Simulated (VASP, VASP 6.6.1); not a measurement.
# Lattice constant $a$ of hcp scandium with LDA, PBEsol, PBE and r2SCAN

## Reference data

The reference is the hexagonal lattice constant of scandium metal, $a = 3.31$ Å, taken from "Electronic structure investigation of the cubic inverse perovskite Sc3AlN" (2011, arXiv:1112.2697). There it is a literature value that served as input to a calculation, not a new measurement. Neither the method nor the form of the sample is given with it. We take it to be a rounded room-temperature value for the hcp metal. Dissolved hydrogen and other interstitials shift the lattice constants of scandium slightly, and the purity of the sample behind the number is not known to us. A published structure refinement, from which our starting cell is derived, has $a = 3.309$ Å, in agreement with the reference at the precision that matters here.

| compared with | measured | source's wording or label | method |
| --- | --- | --- | --- |
| lattice constant a of the conventional cell (Å) | 3.31 | hexagonal a | not stated |

Conditions are those given with the value in the passage it was taken from; "not stated" means there, and the paper may say more elsewhere.

## Method

We look for the cheapest density functional that gives $a$ of hcp scandium within 0.5 % of the reference, which is about 0.017 Å either way. This is narrow enough to separate functionals whose usual errors in metals are one or two per cent, and wide enough that the rounding of the reference does not dominate. The calculations treat static nuclei at zero temperature; thermal expansion and zero-point motion together should make a room-temperature $a$ larger by a few tenths of a per cent at most.

The model is the two-atom hcp cell without magnetic order, since scandium is an enhanced paramagnet. The cell starts from the refined structure stretched by 3 % in volume and is relaxed twice, so that the second relaxation begins with a basis suited to the new cell. We begin with LDA, go on to gradient-corrected functionals if it misses, and consider dearer functionals only if those fail too. The $k$ mesh and the cutoff are to be tested before a verdict, because a transition metal with a partly filled d band can be sensitive to the sampling of its Fermi surface.

System: Sc; P6_3/mmc (No. 194), 2 atoms in the cell; conventional a = 3.309, c = 5.273 A, from a published structure refinement (COD).

## 1. LDA as the lowest rung

LDA is the simplest functional, and a two-atom metal cell costs little even on a fairly dense mesh. We expect it to overbind and to give $a$ too small by one or two per cent, which would miss the target. The run then shows how much a gradient correction has to restore.

**Run 1.** VASP 6.6.1: LDA; 450 eV, 16x16x8 k mesh; cell and atoms relaxed, relaxed twice.

Key lines of the input:
```
ALGO = Normal
EDIFF = 1E-06
EDIFFG = -0.004
ENCUT = 450
GGA = CA
IBRION = 2
ISIF = 3
ISMEAR = 1
NBANDS = 17
NELM = 100
NSW = 50
PREC = Accurate
SIGMA = 0.15
KPOINTS: Gamma, 16 16 8
PAW data sets: Sc_sv (LDA 64)
```

Command:
```
mpirun -np 4 vasp_std
```

Selected lines of the output:
```
 reached required accuracy - stopping structural energy minimisation
  volume of cell :       45.08
     3.232526264  0.000000000 -0.000000000     0.309355568  0.178606521 -0.000000000
     0.000000000  0.000000000  4.981464690     0.000000000  0.000000000  0.200744171
```

Converged; 1.7 min on 4 cores of Intel Xeon Platinum 8488C (Sapphire Rapids), shared host (all steps together).

| quantity | run 1 | measured | deviation |
| --- | --- | --- | --- |
| lattice constant a of the conventional cell (Å) | 3.233 | 3.31 | −0.077 (−2.3 %) |
| volume of the conventional cell (Å³) | 45.08 |  |  |
| lattice constant c of the conventional cell (Å) | 4.981 |  |  |
| space group at the end | P6_3/mmc |  |  |
| pressure left at the end (GPa) | 0.0031 |  |  |

LDA gives $a = 3.233$ Å, 2.3 % below the reference and somewhat further off than the one or two per cent we had expected. Thermal expansion and zero-point motion have the right sign to explain part of this, but are far too small to close the gap. The $c$ axis contracts even more: 4.981 Å against 5.273 Å in the refined structure, about 5.5 %. LDA therefore makes the cell too flat as well as too small.

## 2. Two gradient corrections at equal cost

A gradient correction is the next step up and adds little to the cost of a cell this small. We run PBEsol and PBE side by side with the mesh and cutoff unchanged, since neither is dearer than the other. Both should lengthen $a$. PBEsol is built for the lattice constants of solids, but it usually stays closer to LDA than PBE does, and after so large an LDA error it may not go far enough. We expect PBE to come nearer to the reference.

**Run 2.** VASP 6.6.1: PBEsol; 450 eV, 16x16x8 k mesh; cell and atoms relaxed, relaxed twice.

Key lines of the input, as changed from run 1:
```diff
- GGA = CA
+ GGA = PS
- PAW data sets: Sc_sv (LDA 64)
+ PAW data sets: Sc_sv (PBE 64)
```

Selected lines of the output:
```
     3.277979358  0.000000000  0.000000000     0.305065984  0.176129928  0.000000000
     0.000000000  0.000000000  5.078438211     0.000000000  0.000000000  0.196910932
```

Converged; 93 s, same machine (all steps together).

**Run 3.** VASP 6.6.1: PBE; 450 eV, 16x16x8 k mesh; cell and atoms relaxed, relaxed twice.

Key lines of the input, as changed from run 2:
```diff
- GGA = PS
+ GGA = PE
```

Selected lines of the output:
```
  volume of cell :       49.25
     3.319395994  0.000000000  0.000000000     0.301259627  0.173932327  0.000000000
     0.000000000  0.000000000  5.161562551     0.000000000  0.000000000  0.193739781
```

Converged; 64 s, same machine (all steps together).

| quantity | run 2 | run 3 | measured |
| --- | --- | --- | --- |
| lattice constant a of the conventional cell (Å) | 3.278 | 3.319 | 3.31 |
| volume of the conventional cell (Å³) | 47.26 | 49.25 |  |
| lattice constant c of the conventional cell (Å) | 5.078 | 5.162 |  |
| space group at the end | P6_3/mmc | P6_3/mmc |  |
| pressure left at the end (GPa) | −0.0209 | 0.0003 |  |

PBE gives $a = 3.319$ Å, 0.3 % above the reference and inside the target. PBEsol recovers only part of the LDA error and misses by 1.0 % on the short side. The two runs took similar times, so PBEsol has no advantage in cost.

The agreement of PBE does not extend to the whole cell. Its $c$ of 5.162 Å is about 2 % shorter than the 5.273 Å of the refined structure, while its $a$ is slightly longer. All three functionals give a cell that is too flat, with $c/a$ between 1.54 and 1.56, roughly 2 to 3 % below the ratio in the refinement. A good $a$ may therefore owe something to an error in shape.

## 3. Denser mesh and higher cutoff

The axial ratio of a hexagonal transition metal can depend on how the Fermi surface is sampled, so the flat cell is a reason to test the mesh before blaming the functionals. We repeat the PBEsol relaxation once with a denser mesh and once with a higher cutoff, changing one setting at a time. These tests apply strictly to PBEsol; for PBE, which has the same PAW data and a similar electronic structure, they are only a guide. The PBE value lies about 0.007 Å inside the upper limit, and we expect both changes in $a$ to be smaller than that.

**Run 4.** VASP 6.6.1: PBEsol; 450 eV, 22x22x12 k mesh; cell and atoms relaxed, relaxed twice.

Key lines of the input, as changed from run 2:
```diff
- KPOINTS: Gamma, 16 16 8
+ KPOINTS: Gamma, 22 22 12
```

Selected lines of the output:
```
     3.277931845 -0.000000000 -0.000000000     0.305070406  0.176132481 -0.000000000
     0.000000000  0.000000000  5.077064690     0.000000000  0.000000000  0.196964203
```

Converged; 2.4 min, same machine (all steps together).

**Run 5.** VASP 6.6.1: PBEsol; 600 eV, 16x16x8 k mesh; cell and atoms relaxed, relaxed twice.

Key lines of the input, as changed from run 2:
```diff
- ENCUT = 450
+ ENCUT = 600
```

Selected lines of the output:
```
     3.278322983 -0.000000000 -0.000000000     0.305034008  0.176111467 -0.000000000
     0.000000000  0.000000000  5.080018733     0.000000000  0.000000000  0.196849668
```

Converged; 2.8 min, same machine (all steps together).

| quantity | run 4 | run 5 | measured |
| --- | --- | --- | --- |
| lattice constant a of the conventional cell (Å) | 3.278 | 3.278 | 3.31 |
| volume of the conventional cell (Å³) | 47.24 | 47.28 |  |
| lattice constant c of the conventional cell (Å) | 5.077 | 5.080 |  |
| space group at the end | P6_3/mmc | P6_3/mmc |  |
| pressure left at the end (GPa) | −0.0067 | −0.0177 |  |

Neither change matters for $a$: the denser mesh and the higher cutoff each move it by less than 0.001 Å, and $c$ by less than 0.002 Å. Shifts this small are comparable to what the stopping criterion of the relaxations allows, so we attach no meaning to their signs. The PBEsol miss is therefore not a matter of sampling or basis size, and neither is its flat cell. For PBE the result is indirect support: its margin of about 0.007 Å is many times larger than the shifts seen here.

## 4. A meta-GGA for the axial ratio

PBE already meets the target for $a$, so a dearer functional is not needed for that. The short $c$ axis remains unexplained, however, and it weakens confidence in the good $a$. We therefore relax the cell once with r2SCAN, which adds the kinetic-energy density to the functional, and include the non-spherical gradient terms inside the PAW spheres. If the axial ratio moves towards the refined one, the flat cell is at least partly due to the simpler treatment; if it stays, the cause must be sought elsewhere. We expect a longer run than with PBE and have no firm expectation for the shape.

**Run 6.** VASP 6.6.1: r2SCAN; 450 eV, 16x16x8 k mesh; cell and atoms relaxed, relaxed twice, LASPH on.

Key lines of the input, as changed from run 2:
```diff
- GGA = PS
+ LASPH = .TRUE.
+ METAGGA = R2SCAN
```

Selected lines of the output:
```
 reached required accuracy - stopping structural energy minimisation
  volume of cell :       49.93
     3.331936189  0.000000000  0.000000000     0.300125796  0.173277709  0.000000000
     0.000000000  0.000000000  5.193026263     0.000000000  0.000000000  0.192565943
```

Converged; 3 min, same machine (all steps together).

| quantity | run 6 | measured | deviation |
| --- | --- | --- | --- |
| lattice constant a of the conventional cell (Å) | 3.332 | 3.31 | +0.022 (+0.7 %) |
| volume of the conventional cell (Å³) | 49.93 |  |  |
| lattice constant c of the conventional cell (Å) | 5.193 |  |  |
| space group at the end | P6_3/mmc |  |  |
| pressure left at the end (GPa) | 0.0034 |  |  |

r2SCAN gives $a = 3.332$ Å, 0.7 % above the reference, a narrow miss about 0.005 Å beyond the upper limit. It lengthens both axes relative to PBE but hardly changes the shape: $c/a$ rises from 1.555 to 1.559, still roughly 2 % below the ratio in the refined structure. With $a$ too long and $c$ still 1.5 % too short, the two errors nearly cancel in the volume, which comes out close to that of the refined cell.

The meta-GGA thus does not cure the flat cell. For the basal lattice constant, the step up from PBE brings no gain.

## Comparison with experiment

| run | settings | lattice constant a of the conventional cell (Å) | deviation | cost |
| --- | --- | --- | --- | --- |
| 1 | LDA, 450 eV, 16x16x8 k mesh | 3.233 | −0.077 (−2.3 %) | 6.7 core-min |
| 2 | PBEsol, 450 eV, 16x16x8 k mesh | 3.278 | −0.032 (−1.0 %) | 6.2 core-min |
| 3 | PBE, 450 eV, 16x16x8 k mesh | 3.319 | +0.009 (+0.3 %) | 4.2 core-min |
| 4 | PBEsol, 450 eV, 22x22x12 k mesh | 3.278 | −0.032 (−1.0 %) | 9.6 core-min |
| 5 | PBEsol, 600 eV, 16x16x8 k mesh | 3.278 | −0.032 (−1.0 %) | 11 core-min |
| 6 | r2SCAN, 450 eV, 16x16x8 k mesh, LASPH on | 3.332 | +0.022 (+0.7 %) | 12 core-min |
|  | measured | 3.31 |  |  |

The runs in order, against the measurement:

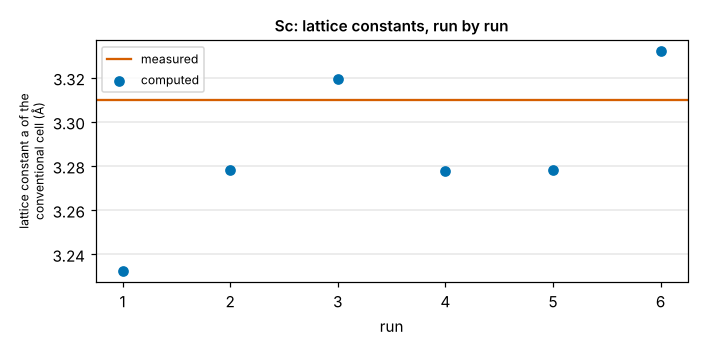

## Discussion

PBE meets the target: its $a$ of 3.319 Å lies 0.3 % above the reference, at a cost of 4.2 core-minutes. LDA and PBEsol are too short by 2.3 % and 1.0 % and save nothing noticeable in time; r2SCAN narrowly misses on the long side.

The pass holds for $a$ alone and does not show that PBE describes the cell well. Its $c$ axis is about 2 % shorter than in the refined structure, and its volume is roughly 1.5 % too small. At the same volume but with the refined axial ratio, $a$ would be about half a per cent too short, so the good value depends partly on the error in shape. Thermal expansion and zero-point motion, absent from the runs, would lengthen $a$ by perhaps a few tenths of a per cent and could bring PBE to the upper limit or past it.

The step from PBEsol to PBE decided the outcome. The tests of mesh and cutoff showed that neither explains the PBEsol miss, but they would have served the verdict better at the PBE level, where they were not made. The r2SCAN run did not remove the flattening, which all four functionals share.

These runs do not identify the cause of that flattening. Dissolved hydrogen or other interstitials in the measured samples shift the lattice constants only slightly, so they are unlikely to account for a $c$ axis that differs by about 2 %. The PBE run also left out the non-spherical gradient terms inside the PAW spheres, and their effect on the PBE cell was not examined here.

[Logs are printed without paths, hosts, clocks, repeated set-up lines and the standing remarks that a program may print on its own settings, such as how far it seeks lower states.]

[The runs shown are a pick from a larger set of finished runs; failed, doubtful and other runs were left out of it ahead of writing. So were measured values far from every level or from commonly accepted values, and agreement can look better than it is. Lines of input and output are excerpts and may be shortened.]
